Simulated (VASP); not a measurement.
# Biaxial (111) strain of fcc iridium at PBEsol: stress, normal strain, strain energy and the limits of linear elasticity

Iridium films with a (111) surface serve as growth supports for graphene and other thin layers, and misfit with the substrate beneath can leave them strained in the plane. Predicting the film's stress and thickness change requires its elastic response and the strain at which constant moduli cease to suffice. Here equal in-plane strains from −2 % to +2 % are imposed on bulk Ir at the PBEsol level, with the stress along the normal brought to zero. Strains and energies are measured against the crystal relaxed with the same functional, and tension is positive. The series yields the bulk modulus and the shear constant C₄₄, and shows how both change with strain.

## Set-up

The start is an entry of the ASE's table of reference states database. The crystal was relaxed with PBEsol. Equal strain is imposed in the (111) plane; the strain along the normal is adjusted until the normal stress vanishes, and the atoms are relaxed with PBEsol. VASP 6.6.1, plane waves with PAW, cutoff 450 eV, no spin polarisation, no spin-orbit coupling, k mesh 26×26×26, static lattice. The same in all rows: band gap on the k mesh at PBEsol: 0.000 eV.

Notes on method and selection:

- Runs that did not converge, have known faults or may not be shown are not listed, and runs on Ansatz's PAW sets soft_1 and soft_2 are kept to separate tables.

Columns:

- strain (%): strain in the plane (tension positive).
- normal strain (%): strain along the normal.
- stress (GPa): in-plane stress, tension positive.
- strain energy (meV/atom): energy per atom above the relaxed crystal.

## The series

```
member  strain (%)  normal strain (%)  stress (GPa)  strain energy (meV/atom)
−2 %    −2.0        1.055              −19.74        33.14
−1.5 %  −1.5        0.790              −14.32        18.31
−1 %    −1.0        0.526              −9.23         8.035
−0.5 %  −0.5        0.263              −4.47         2.030
0 %     0.0         0.000              0.00          0.04024
+0.5 %  0.5         −0.258             4.19          1.843
+1 %    1.0         −0.514             8.13          7.223
+1.5 %  1.5         −0.767             11.82         15.97
+2 %    2.0         −1.016             15.28         27.92
```

normal strain (%) against strain (%):

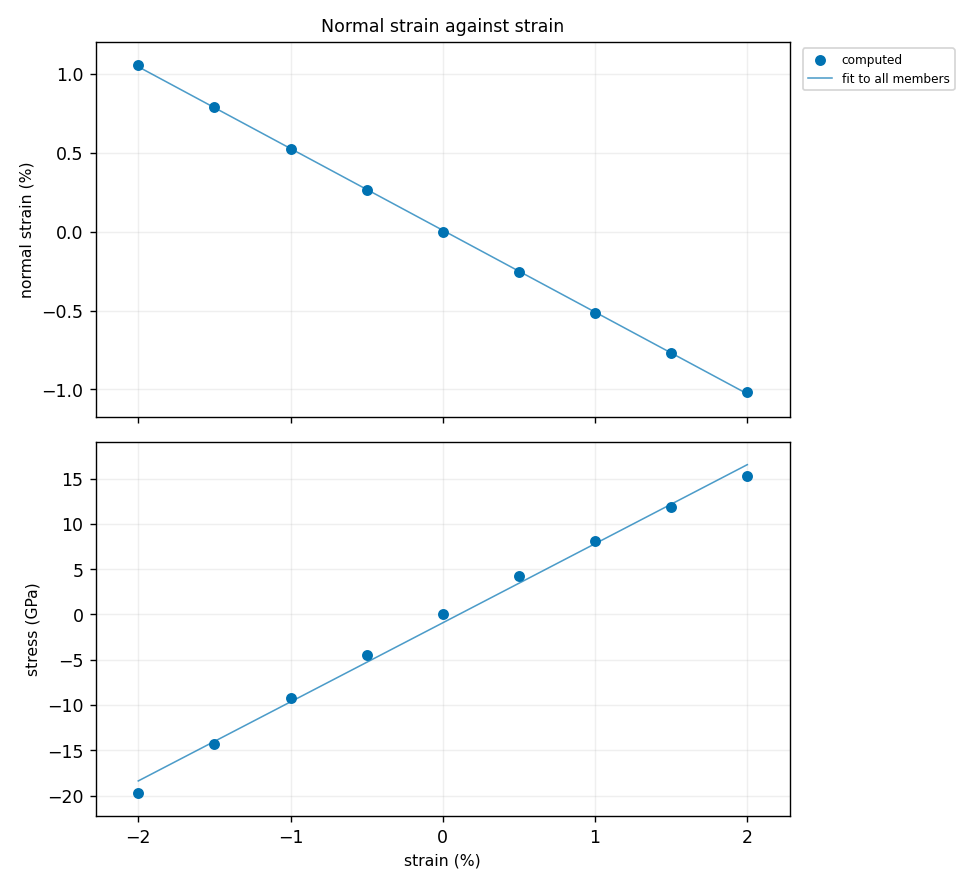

Least-squares fits to the whole series, with x = strain (%); R² and errors in the fitted variable (y, or ln y where the fit is in ln y):

```
y                  members  fit                      R²    rms residual  leave-one-out rms  the same for the mean of the others
normal strain (%)  9        y = 0.008778 − 0.5185 x  1.00  0.0069        0.0098             0.75
stress (GPa)       9        y = −0.9267 + 8.729 x    0.99  0.82          1.2                13
```

## Interpretation

From −2 % to +2 % the in-plane stress rises from −19.74 to 15.28 GPa, while the normal strain falls from 1.055 to −1.016 %. The strain energy is lowest in the unstrained row, and at equal magnitude of strain it is always higher in compression than in tension.

The linear model assumes small strains, constant moduli and zero normal stress. The strain lowers the symmetry from Fm-3m to R-3m, but each atom remains on an inversion centre, so no internal displacement has to be added. Let e be the in-plane strain, eₙ the normal strain and σ the in-plane stress.

1. The relative volume change is 2e + eₙ. The mean of the three principal stresses is 2σ/3, because one of them is zero. The bulk modulus B connects the two: 2σ/3 = B(2e + eₙ).

2. The remaining change of shape is a stretch or compression along [111]. In the cubic axes it contains only shear components, which C₄₄ alone resists: σ = 2C₄₄(e − eₙ).

3. Both equations are linear, so eₙ = −R e and σ = M e. Insertion gives B = 2M/[3(2 − R)] and C₄₄ = M/[2(1 + R)].

4. Each of the two in-plane directions contributes work σe/2 per volume. The energy per atom is therefore U = V M e², with V the atomic volume.

Two measured slopes, R and M, thus fix two moduli. Solved the other way, R = 2(3B − 2C₄₄)/(3B + 4C₄₄), so the normal strain depends only on the ratio of B to C₄₄, whereas the stress depends on their absolute size. The constants C₁₁ and C₁₂ enter only through C₁₁ + 2C₁₂ = 3B and cannot be obtained separately from this strain.

## Testing the model

The model is fixed on the members −0.5 % and +0.5 %, whose average slope removes the leading curvature.

M = (4.19 + 4.47)/1.0 = 8.66 GPa per %; per unit strain, 8.66 × 100 = 866 GPa

R = (0.263 + 0.258)/1.0 = 0.521

B = 2 × 8.66 × 100/(3 × (2 − 0.521)) = 390 GPa

C₄₄ = 8.66 × 100/(2 × (1 + 0.521)) = 285 GPa

Stress and normal strain then follow for four other members:

- −2 %: σ = 8.66 × (−2.0) = −17.32 GPa (table −19.74); eₙ = −0.521 × (−2.0) = 1.042 % (table 1.055).
- −1 %: σ = 8.66 × (−1.0) = −8.66 GPa (table −9.23); eₙ = −0.521 × (−1.0) = 0.521 % (table 0.526).
- +1 %: σ = 8.66 × 1.0 = 8.66 GPa (table 8.13); eₙ = −0.521 × 1.0 = −0.521 % (table −0.514).
- +2 %: σ = 8.66 × 2.0 = 17.32 GPa (table 15.28); eₙ = −0.521 × 2.0 = −1.042 % (table −1.016).

The energy needs one correction. The unstrained row lies 0.040 meV/atom above the reference, most likely because the plane-wave set was renewed after the cell relaxation. With this offset removed, the coefficient of e² is [(2.030 + 1.843)/2 − 0.040]/0.25 = 7.59 meV/atom per %². At ±2 % the model gives 7.59 × 4 + 0.04 = 30.4 meV/atom, between the tabulated 33.14 in compression and 27.92 in tension.

## Departures from the trend

Largest departures from the fit to the whole series:

```
member  normal strain (%)  fit     computed − fit  in rms residuals
+2 %    −1.016             −1.028  +0.012          1.8
−2 %    1.055              1.046   +0.009          1.3
0 %     0.000              0.009   −0.009          1.3
+0.5 %  −0.258             −0.250  −0.008          1.1
```

The linear stress is too high algebraically in every strained row: tension is overestimated and compression underestimated. The assumption that fails is that of constant moduli. Half the sum of the stresses at ±0.5 % gives a quadratic term, (4.19 − 4.47)/(2 × 0.25) = −0.56 GPa per %². With it, the stress at +2 % becomes 17.32 − 0.56 × 4 = 15.08 GPa. Over all nine rows the rms miss is 0.10 GPa, against 0.82 for the fitted straight line and 13 for the mean of the others. The intercept of that line, −0.9267 GPa, reflects this curvature and is no residual stress.

Steps 1 and 2, applied to single rows, show which modulus changes. The effective B is 2 × 19.74/(3 × (4.0 − 1.055)) × 100 = 447 GPa at −2 % and 2 × 15.28/(3 × (4.0 − 1.016)) × 100 = 341 GPa at +2 %. The effective C₄₄ falls likewise, from 19.74/(2 × (2.0 + 1.055)) × 100 = 323 to 15.28/(2 × (2.0 + 1.016)) × 100 = 253 GPa. Both soften as the volume grows and the in-plane bonds lengthen, as expected for anharmonic bonding. Their ratio changes little, which is why the normal strain stays nearly linear while the stress does not.

## Conclusions and limits

Linear elasticity with B = 390 GPa and C₄₄ = 285 GPa gives the stress to about 3 % at ±0.5 % strain, 7 % at ±1 % and 13 % at ±2 %. The normal strain stays within 3 % over the whole range.

Two effects absent from a perfect bulk crystal can exceed the departure from linearity, which is about 2 GPa at the ends of the series. Dislocations in a real film relax the stress towards zero and may remove most of the 15 GPa found at +2 %. In a very thin film, a tensile surface stress f on each of the two faces adds 2f/t to the stress averaged over the thickness t; at t = 1 nm, f = 1 N/m is enough to add 2 GPa.

[Logs are printed without paths, hosts, clocks, repeated set-up lines and the standing remarks that a program may print on its own settings, such as how far it seeks lower states.]
